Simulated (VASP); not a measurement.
# Pressure and energy of HfB₂ (P6/mmm) under even scaling of the cell, PBEsol

The pressure and the energy per atom of crystalline HfB₂ are calculated at seven volumes, from about 6 % below to 6 % above the fitted equilibrium volume. The question is how both quantities change along this line, and whether one short formula can describe them together. The answer matters because the slope of the pressure gives the bulk modulus, and its curvature tells how fast the crystal stiffens when it is squeezed. Positive pressure means a compressed cell, and negative pressure a stretched one. Energies are counted from the lowest point of the series, the row at 9.73 Å³. The pressure comes from the stress tensor and the energy from the total energy, so each can serve as a check on the other.

## Method

A cell from a diffraction database, relaxed at this level and then scaled evenly, fractional positions kept. VASP 6.6.1, plane waves with PAW, PBEsol, cutoff 420 eV, k mesh 7×7×6, no spin polarisation, no spin-orbit coupling, static lattice. A Birch-Murnaghan fit to the energies has its minimum at 9.73 Å³ per atom.

Notes on method and selection:

- The pressure is that of a finite plane-wave basis, so it need not vanish exactly at the minimum of the energy.
- Only series whose fit has its minimum inside the range and an error under 0.5 meV per atom are shown.
- Where rows or columns differ in functional or spin-orbit coupling, non-spherical gradient terms in the PAW spheres (LASPH) may be on in some and off in others.
- Runs that did not converge, have known faults or may not be shown are not listed, and runs on Ansatz's PAW sets soft_1 and soft_2 are kept to separate tables.

Columns:

- volume change (%): volume relative to the fitted equilibrium volume.
- pressure (GPa): pressure from the stress tensor (positive: compressed).
- energy (meV/atom): energy per atom above the lowest point of the series.

Input lines of one member:

```
PREC = Accurate
ENCUT = 420
EDIFF = 1E-06
NELM = 100
ISMEAR = 0
SIGMA = 0.05
LREAL = .FALSE.
ALGO = Normal
GGA = PS
NBANDS = 14
LASPH = .TRUE.
LORBIT = 11
KPAR = 2
ISIF = 2
```

Command (options for logging and memory left out): `mpirun -np 2 vasp_std`

## Computed values

```
member    volume change (%)  pressure (GPa)  energy (meV/atom)
9.15 Å³   −6.02              18.58           32.5
9.34 Å³   −4.03              11.77           14.0
9.54 Å³   −2.03              5.59            3.4
9.73 Å³   −0.03              0.00            0.0
9.93 Å³   1.97               −5.08           3.0
10.12 Å³  3.97               −9.68           12.0
10.32 Å³  5.97               −13.86          26.2
```

pressure (GPa) against volume change (%):

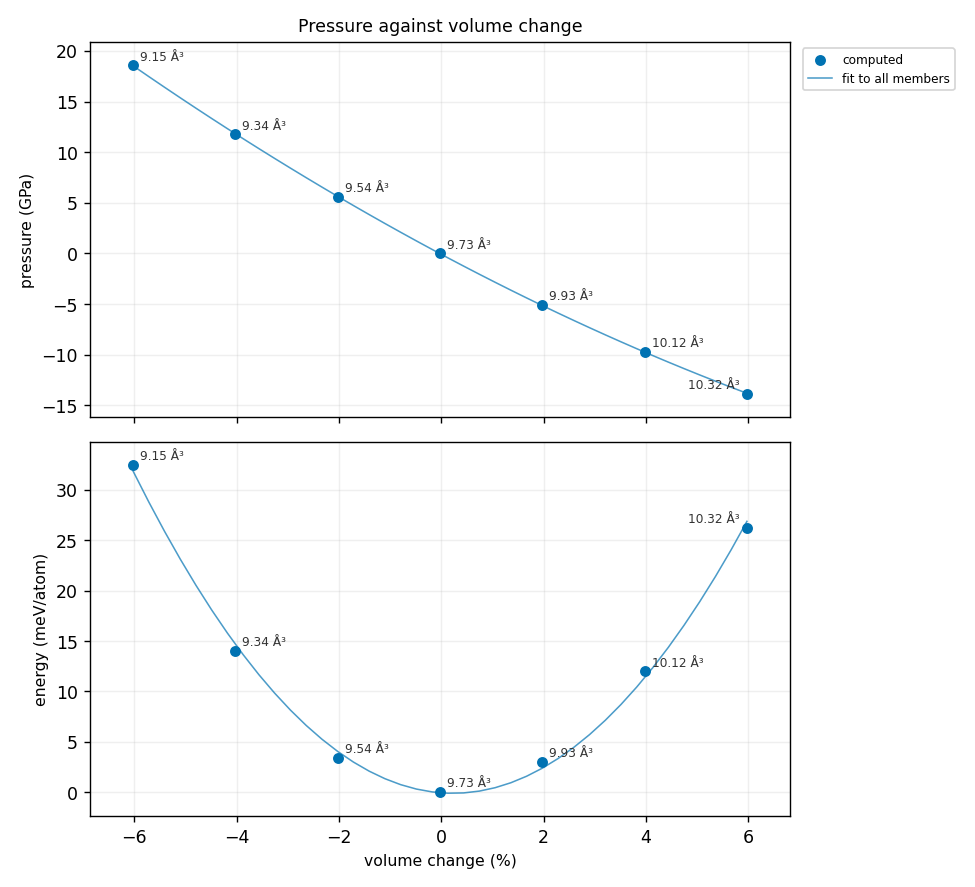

Least-squares fits to the whole series, with x = volume change (%); R² and errors in the fitted variable (y, or ln y where the fit is in ln y):

```
y                  members  fit                                  R²    rms residual  leave-one-out rms  the same for the mean of the others
pressure (GPa)     7        y = −0.08930 − 2.692 x + 0.06620 x²  1.00  0.055         0.15               13
energy (meV/atom)  7        y = −0.06829 − 0.3724 x + 0.8178 x²  1.00  0.62          1.7                13
```

## The trend and its physics

The pressure falls from row to row, from 18.58 GPa at 9.15 Å³ to −13.86 GPa at 10.32 Å³, while the energy rises on both sides of 9.73 Å³. Neither curve is symmetric. Between the two smallest cells the pressure drops by (18.58 − 11.77) / (6.02 − 4.03) = 3.42 GPa per percent of volume, and between the two largest by only (13.86 − 9.68) / (5.97 − 3.97) = 2.09 GPa per percent. Short-range repulsion rises more steeply than the attraction as the atoms approach, so the crystal is stiffer when compressed.

A model with two parameters follows from three assumptions.

1. The pressure p is zero at the fitted equilibrium volume V₀.
2. The bulk modulus B = −V dp/dV grows linearly with pressure, B = B₀ + B′p.
3. The relative volume change s = (V − V₀)/V₀ is small, so terms beyond s² in the pressure are dropped.

With V = V₀(1 + s), the definition of B gives dp/ds = −(B₀ + B′p)/(1 + s). To lowest order p = −B₀s. Inserting this on the right and keeping terms linear in s gives

dp/ds = −B₀ + B₀(1 + B′)s.

Integration from s = 0 yields

p = −B₀s + ½B₀(1 + B′)s².

With x = 100 s, the volume change in percent, this reads

p = −bx + cx², where b = B₀/100 and c = B₀(1 + B′)/20000.

The energy is the work done against the pressure, E = −∫p dV, taken from V₀. Since 1 GPa·Å³ is 6.24 meV and V₀ is 9.73 Å³, the prefactor is 6.24 × 9.73 / 100 = 0.607, and

E = 0.607 (bx²/2 − cx³/3) in meV per atom.

The term in c raises the energy on compression and lowers it on expansion. A parabola in the energy lacks this term, which is why the quadratic energy fit has a leave-one-out error of 1.7 meV per atom.

## Fixing and testing the model

The two parameters are fixed on the pressures at 9.34 Å³ and 10.12 Å³. Dividing the model by x gives p/x = −b + cx, and the two rows give

11.77 / (−4.03) = −2.9206 and −9.68 / 3.97 = −2.4383.

Hence c = (2.9206 − 2.4383) / (3.97 + 4.03) = 0.0603 GPa per percent squared, and b = 2.9206 − 0.0603 × 4.03 = 2.678 GPa per percent. This corresponds to B₀ = 100 × 2.678 = 268 GPa and B′ = 200 × 0.0603 / 2.678 − 1 = 3.50.

The pressures of four other members follow:

- 9.15 Å³: 2.678 × 6.02 + 0.0603 × 6.02² = 18.31 GPa; table 18.58 GPa.
- 9.54 Å³: 2.678 × 2.03 + 0.0603 × 2.03² = 5.68 GPa; table 5.59 GPa.
- 9.93 Å³: −2.678 × 1.97 + 0.0603 × 1.97² = −5.04 GPa; table −5.08 GPa.
- 10.32 Å³: −2.678 × 5.97 + 0.0603 × 5.97² = −13.84 GPa; table −13.86 GPa.

At 9.73 Å³ the model gives 2.678 × 0.03 = 0.08 GPa; the table has 0.00 GPa. Over these five rows the typical miss is 0.13 GPa. Guessing each row of the series as the mean of the others would miss by 13 GPa.

The same b and c give the energies, although the energies entered only through the position of their minimum, V₀:

- 9.15 Å³: 0.607 × (2.678 × 6.02² / 2 + 0.0603 × 6.02³ / 3) = 32.1 meV per atom; table 32.5.
- 10.32 Å³: 0.607 × (2.678 × 5.97² / 2 − 0.0603 × 5.97³ / 3) = 26.4 meV per atom; table 26.2.

## Departures from the trend

The largest departure in pressure is at 9.15 Å³, where the model is too low by 18.58 − 18.31 = 0.27 GPa. At 9.54, 9.73 and 9.93 Å³ it is too high by 0.04 to 0.09 GPa.

Two assumptions fail slightly. The first is zero pressure at V₀: the quadratic pressure fit gives −0.09 GPa there. At a fixed cutoff a larger cell holds more plane waves, which lowers its energy and moves the energy minimum to a volume where the stress tensor already shows slight tension. Forcing this offset to zero also makes c too small; with a free constant the fit gives B′ = 200 × 0.06620 / 2.692 − 1 = 3.92.

The second is the dropped cubic term, −B₀(1 + B′)(2 + B′)s³/6, roughly 0.3 GPa in size at 6 % and positive on compression. Part of it is absorbed when b is fixed at 4 %. What remains of the two errors adds up at 9.15 Å³ and nearly cancels at 10.32 Å³, so the close agreement in the largest cell is partly a cancellation.

## Conclusions

Between 9.15 and 10.32 Å³ a bulk modulus and its pressure derivative describe both columns, with misses of at most about 0.3 GPa in pressure and, in the two outermost cells, about 0.4 meV per atom or less in energy. The modulus belongs to a fixed ratio of the axes. The basal plane carries more stress than the c axis, so letting the ratio relax would make the crystal slightly softer.

The static lattice omits zero-point motion. Each atom brings three vibrational modes with half a quantum each, so an assumed mean phonon energy of roughly 55 meV gives very roughly 80 meV per atom. This is more than the whole energy range of the table, but mostly a constant shift. Its dependence on volume adds a positive pressure γE/V, where E is the zero-point energy and γ, the Grüneisen parameter, measures how fast the phonon energies fall as the volume grows. With an assumed γ of roughly 1.5 this is roughly 2 GPa, small against the pressure range. Divided by B₀, it moves the equilibrium to a volume somewhat under 1 % larger.

[Logs are printed without paths, hosts, clocks, repeated set-up lines and the standing remarks that a program may print on its own settings, such as how far it seeks lower states.]
